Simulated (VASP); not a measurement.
# Energy of TiCo (Pm-3m) against its total spin moment, from LDA with U = 4 eV on Co

We calculate the energy of TiCo in the Pm-3m structure with the total spin moment of the two-atom cell held at set values, and measure it against the run in which the moment is left free. The level is LDA with a U of 4 eV on Co, at fixed cell and atoms. Such a curve shows how firmly a magnet holds its moment: a steep well means that the size of the moment resists fields and thermal agitation, a shallow one that it gives way easily. This matters when a computed moment is to be used in a model of a magnetic material. It also shows whether a series of held moments stays in one magnetic state, without which interpolation between its points has no basis.

## Set-up

One system, TiCo (Pm-3m), 2 atom(s) a cell, from cells of the Materials Project database (relaxed there by DFT); atoms and cell fixed in these runs. VASP 6.6.1, plane waves with its PAW datasets (LDA 64 release), cutoff 350 eV, Methfessel-Paxton (order 1) smearing of 0.05 eV, k meshes whose coarsest spacing along a reciprocal vector is 0.26 1/Å over all runs (2π included). Functional: LDA; Hubbard U (eV): Co 4; no spin-orbit coupling. Collinear runs hold the difference of up and down electrons at set values; one run leaves it free. Runs that did not converge or carry a known fault are not listed. Non-spherical gradient corrections inside the PAW spheres (LASPH) are on in the VASP runs.

Notes on method and selection:

- Only states reached from the typed start are followed; another order may lie lower.
- Site moments count the spin inside each program's own atomic sphere, so they depend somewhat on its radius and leave out the spin between the spheres.
- The orbital state under U was not searched.
- The variable on the horizontal axis was chosen because the fit in it was close; otherwise the moment or the wavevector itself is used without a fit.
- Runs that did not converge, have known faults or may not be shown are not listed, and runs on Ansatz's PAW sets soft_1 and soft_2 are kept to separate tables.

Columns:

- total moment (μB per cell): total spin moment of the cell.
- site moment (μB): largest site spin moment inside a PAW sphere.
- energy (meV per cell): free energy less that of the free run.

## The series

| member | total moment (μB per cell) | site moment (μB) | energy (meV per cell) | remark |
| --- | --- | --- | --- | --- |
| 0.00 muB | 0.000 | 0.00 | 501.6 |  |
| 0.22 muB | 0.220 | 0.49 | ? |  |
| 0.44 muB | 0.440 | 1.37 | 136.4 |  |
| 0.66 muB | 0.660 | 1.42 | ? |  |
| 0.88 muB | 0.880 | 1.46 | 13.4 |  |
| free | 1.027 | 1.49 | 0.0 | moment left free |
| 1.10 muB | 1.100 | 1.50 | 2.1 |  |
| 1.32 muB | 1.320 | 1.53 | 43.1 |  |
| 1.54 muB | 1.540 | 1.58 | 101.6 |  |

Cells marked ? are withheld until the estimate has been made.

energy (meV per cell) against total moment (μB per cell), members shown:

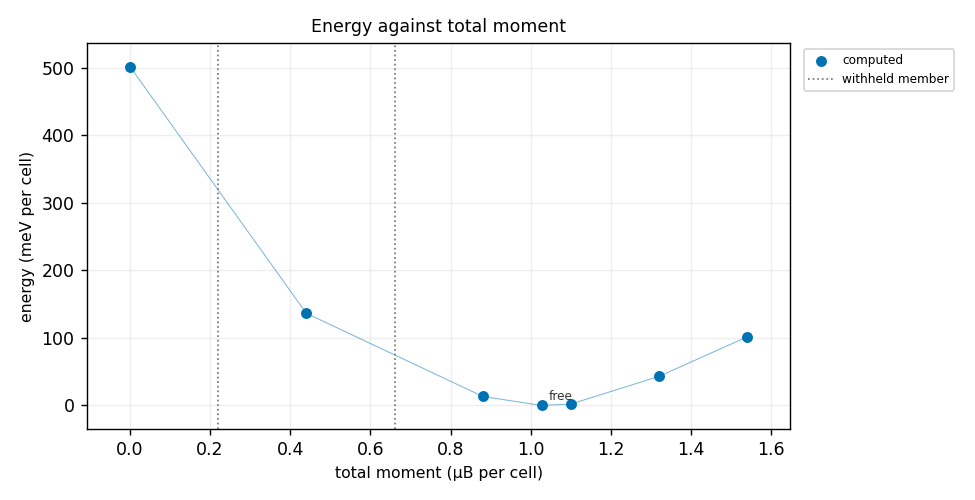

## Interpretation

Among the members shown, the energy falls from 501.6 meV per cell at zero moment to its lowest value in the free run, at 1.027 μB, and rises again to 101.6 meV at 1.54 μB.

Two different energies are involved. The run at zero moment has no spin on either site, whereas at 0.44 μB the Co site already carries 1.37 μB, with Ti opposed to it. The drop between these two runs, 501.6 − 136.4 = 365.2 meV, is therefore mainly the gain from forming a local moment on Co. Exchange within the Co d shell favours parallel spins, and U strengthens this.

From 0.44 to 1.54 μB the total grows by 1.10 μB but the Co moment by only 1.58 − 1.37 = 0.21 μB. Most of the change comes from the shrinking of the opposed Ti moment, and the energy here measures the cost of moving the Ti spin and its bonding to Co away from their preferred balance.

The slope of the curve is half the difference between the Fermi levels of up and down electrons, and it vanishes where the moment is free. Between 0.44 and 0.88 μB it averages (13.4 − 136.4) / 0.440 = −280 meV per μB. Above the minimum it is (43.1 − 2.1) / 0.220 = 186 meV per μB up to 1.32 μB, then (101.6 − 43.1) / 0.220 = 266 meV per μB. The well is thus steep on both sides, but between these last two intervals the slope grows less than in proportion to the distance from the minimum. A low density of states near the Fermi level in one spin channel at the free moment would have this effect; that is a possibility which the columns do not test.

TiCo in this structure is known experimentally as a paramagnet without ordered moments. The deep magnetic well belongs to this level of theory, and the U on Co is its likely cause.

## A prediction

Plain estimates from the members shown:

- 0.22 muB, straight-line interpolation between 0.00 muB and 0.44 muB: w = (0.220 − 0.000) / (0.440 − 0.000) = 0.500, so 501.6 + 0.500 × (136.4 − 501.6) = 319.0 meV per cell
- 0.66 muB, straight-line interpolation between 0.44 muB and 0.88 muB: w = (0.660 − 0.440) / (0.880 − 0.440) = 0.500, so 136.4 + 0.500 × (13.4 − 136.4) = 74.9 meV per cell

At 0.22 μB the straight line (319.0 meV) joins two different states and deserves little trust. The largest site moment is only 0.49 μB and sits on Ti, with Co pointing against the total, so the large Co moment is missing and the energy should lie near that of the nonmagnetic run. We let the gain grow as the square of the largest site moment, with the factor from 0.44 μB: 365.2 / 1.37² = 194.6 meV per μB². This gives 501.6 − 194.6 × 0.49² = 455 meV. Tried on the free run, the rule gives 501.6 − 194.6 × 1.49² = 70 meV instead of zero. Because the factor comes from Co and is applied to Ti, we take an error as large as the gain itself, about 50 meV.

At 0.66 μB the site moment of 1.42 μB fits between its neighbours, so the state is the same and interpolation is sound. The curve bends upward, however, and the straight line (74.9 meV) must be too high. An interval of equal width above the minimum gives the sag: (2.1 + 101.6) / 2 − 43.1 = 8.8 meV at 1.32 μB. Hence 74.9 − 8.8 = 66 meV. A parabola through 0.44, 0.88 and 1.10 μB would give 58 meV, but the same construction through 0.88, 1.10 and 1.54 μB falls 12 meV too low at 1.32 μB. We take half of that miss, 6 meV, as the error.

**Committed estimate, 0.22 muB: energy = 455 ± 50 meV per cell.**  
**Committed estimate, 0.66 muB: energy = 66 ± 6 meV per cell.**

## Check

| member | total moment (μB per cell) | site moment (μB) | energy (meV per cell) |
| --- | --- | --- | --- |
| 0.22 muB | 0.220 | 0.49 | 537.9 |
| 0.66 muB | 0.660 | 1.42 | 58.5 |

| member | estimate | energy (meV per cell) | computed | estimate − computed | miss in error bars |
| --- | --- | --- | --- | --- | --- |
| 0.22 muB | committed | 455.0 | 537.9 | −82.9 | 1.7 |
| 0.22 muB | interpolation | 319.0 | 537.9 | −218.9 |  |
| 0.66 muB | committed | 66.0 | 58.5 | +7.5 | 1.2 |
| 0.66 muB | interpolation | 74.9 | 58.5 | +16.4 |  |

energy (meV per cell) against total moment (μB per cell):

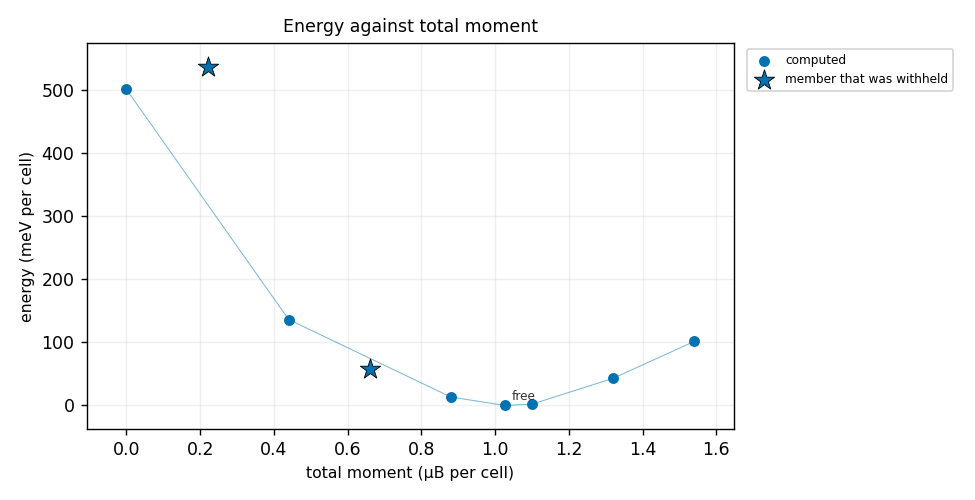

Both estimates fell outside their error bars, and both came closer than the straight line.

At 0.22 μB we gave 455 ± 50 meV and the run gives 537.9 meV. The argument that this state lacks the large Co moment, and so lies far above the straight line, held. The rule that the energy falls with the square of the largest site moment failed even in sign: the run lies 537.9 − 501.6 = 36.3 meV above the nonmagnetic one. Moments of this size, with Ti along the total and Co against it, cost energy here, so a gain calibrated on a large Co moment could not be carried over to them.

At 0.66 μB we gave 66 ± 6 meV against 58.5 meV. The state is the same as in the neighbouring runs and the curve does bend upward, but we took the sag from the far side of the minimum, where it is 8.8 meV. Here it is 74.9 − 58.5 = 16.4 meV, nearly twice as much. The parabola that we set aside, at 58 meV, was the better choice.

## Outliers

The runs from 0.44 to 1.54 μB follow E = 400 × (M − 1.027)², with E in meV per cell, M in μB and the factor fitted to the six held runs, with the minimum set at the free one. Two members lie far above this well.

The run at 0.22 μB is the farthest: its distance from the minimum is 1.027 − 0.220 = 0.807 μB, for which the formula gives 400 × 0.807² = 260.5 meV, and the run lies 537.9 − 260.5 = 277.4 meV higher. The likeliest reason is the magnetic state reached. Its Co moment is small and points against the total, whereas the runs in the well have a large Co moment along it. That it lies above even the nonmagnetic run suggests a self-consistent solution that is not the lowest at this total moment. A start from the site moments of the 0.44 μB run could lead to a lower one.

The run at 0.00 μB lies 501.6 − 400 × 1.027² = 80 meV above the formula. It has no site moments at all, and so lacks the exchange energy of a Co moment compensated by Ti. Such a compensated state would also have zero total moment and may be lower in energy.

## Rules of thumb and their limits

Between 0.44 and 1.54 μB the quadratic formula reproduces the energies of the six held runs with a typical (root-mean-square) miss of 5 meV, against a scatter of 47 meV about their mean; the largest miss is 9 meV, at 1.32 μB. A further moment in this range can be estimated about as well, provided that Co keeps its large moment. Below 0.44 μB the site moments have to be known first.

The curvature, 2 × 400 = 800 meV per μB², gives the response to a field. With 0.058 meV per μB and tesla, 10 T changes the spin moment by 0.058 × 10 / 800 = 0.0007 μB per cell, so the moment is stiff at this level.

Of the omitted physics, spin-orbit coupling should change these energy differences by only about 1 meV, far less than the spread. The choice of U matters much more: a smaller U on Co would make the well shallower, possibly by hundreds of meV.
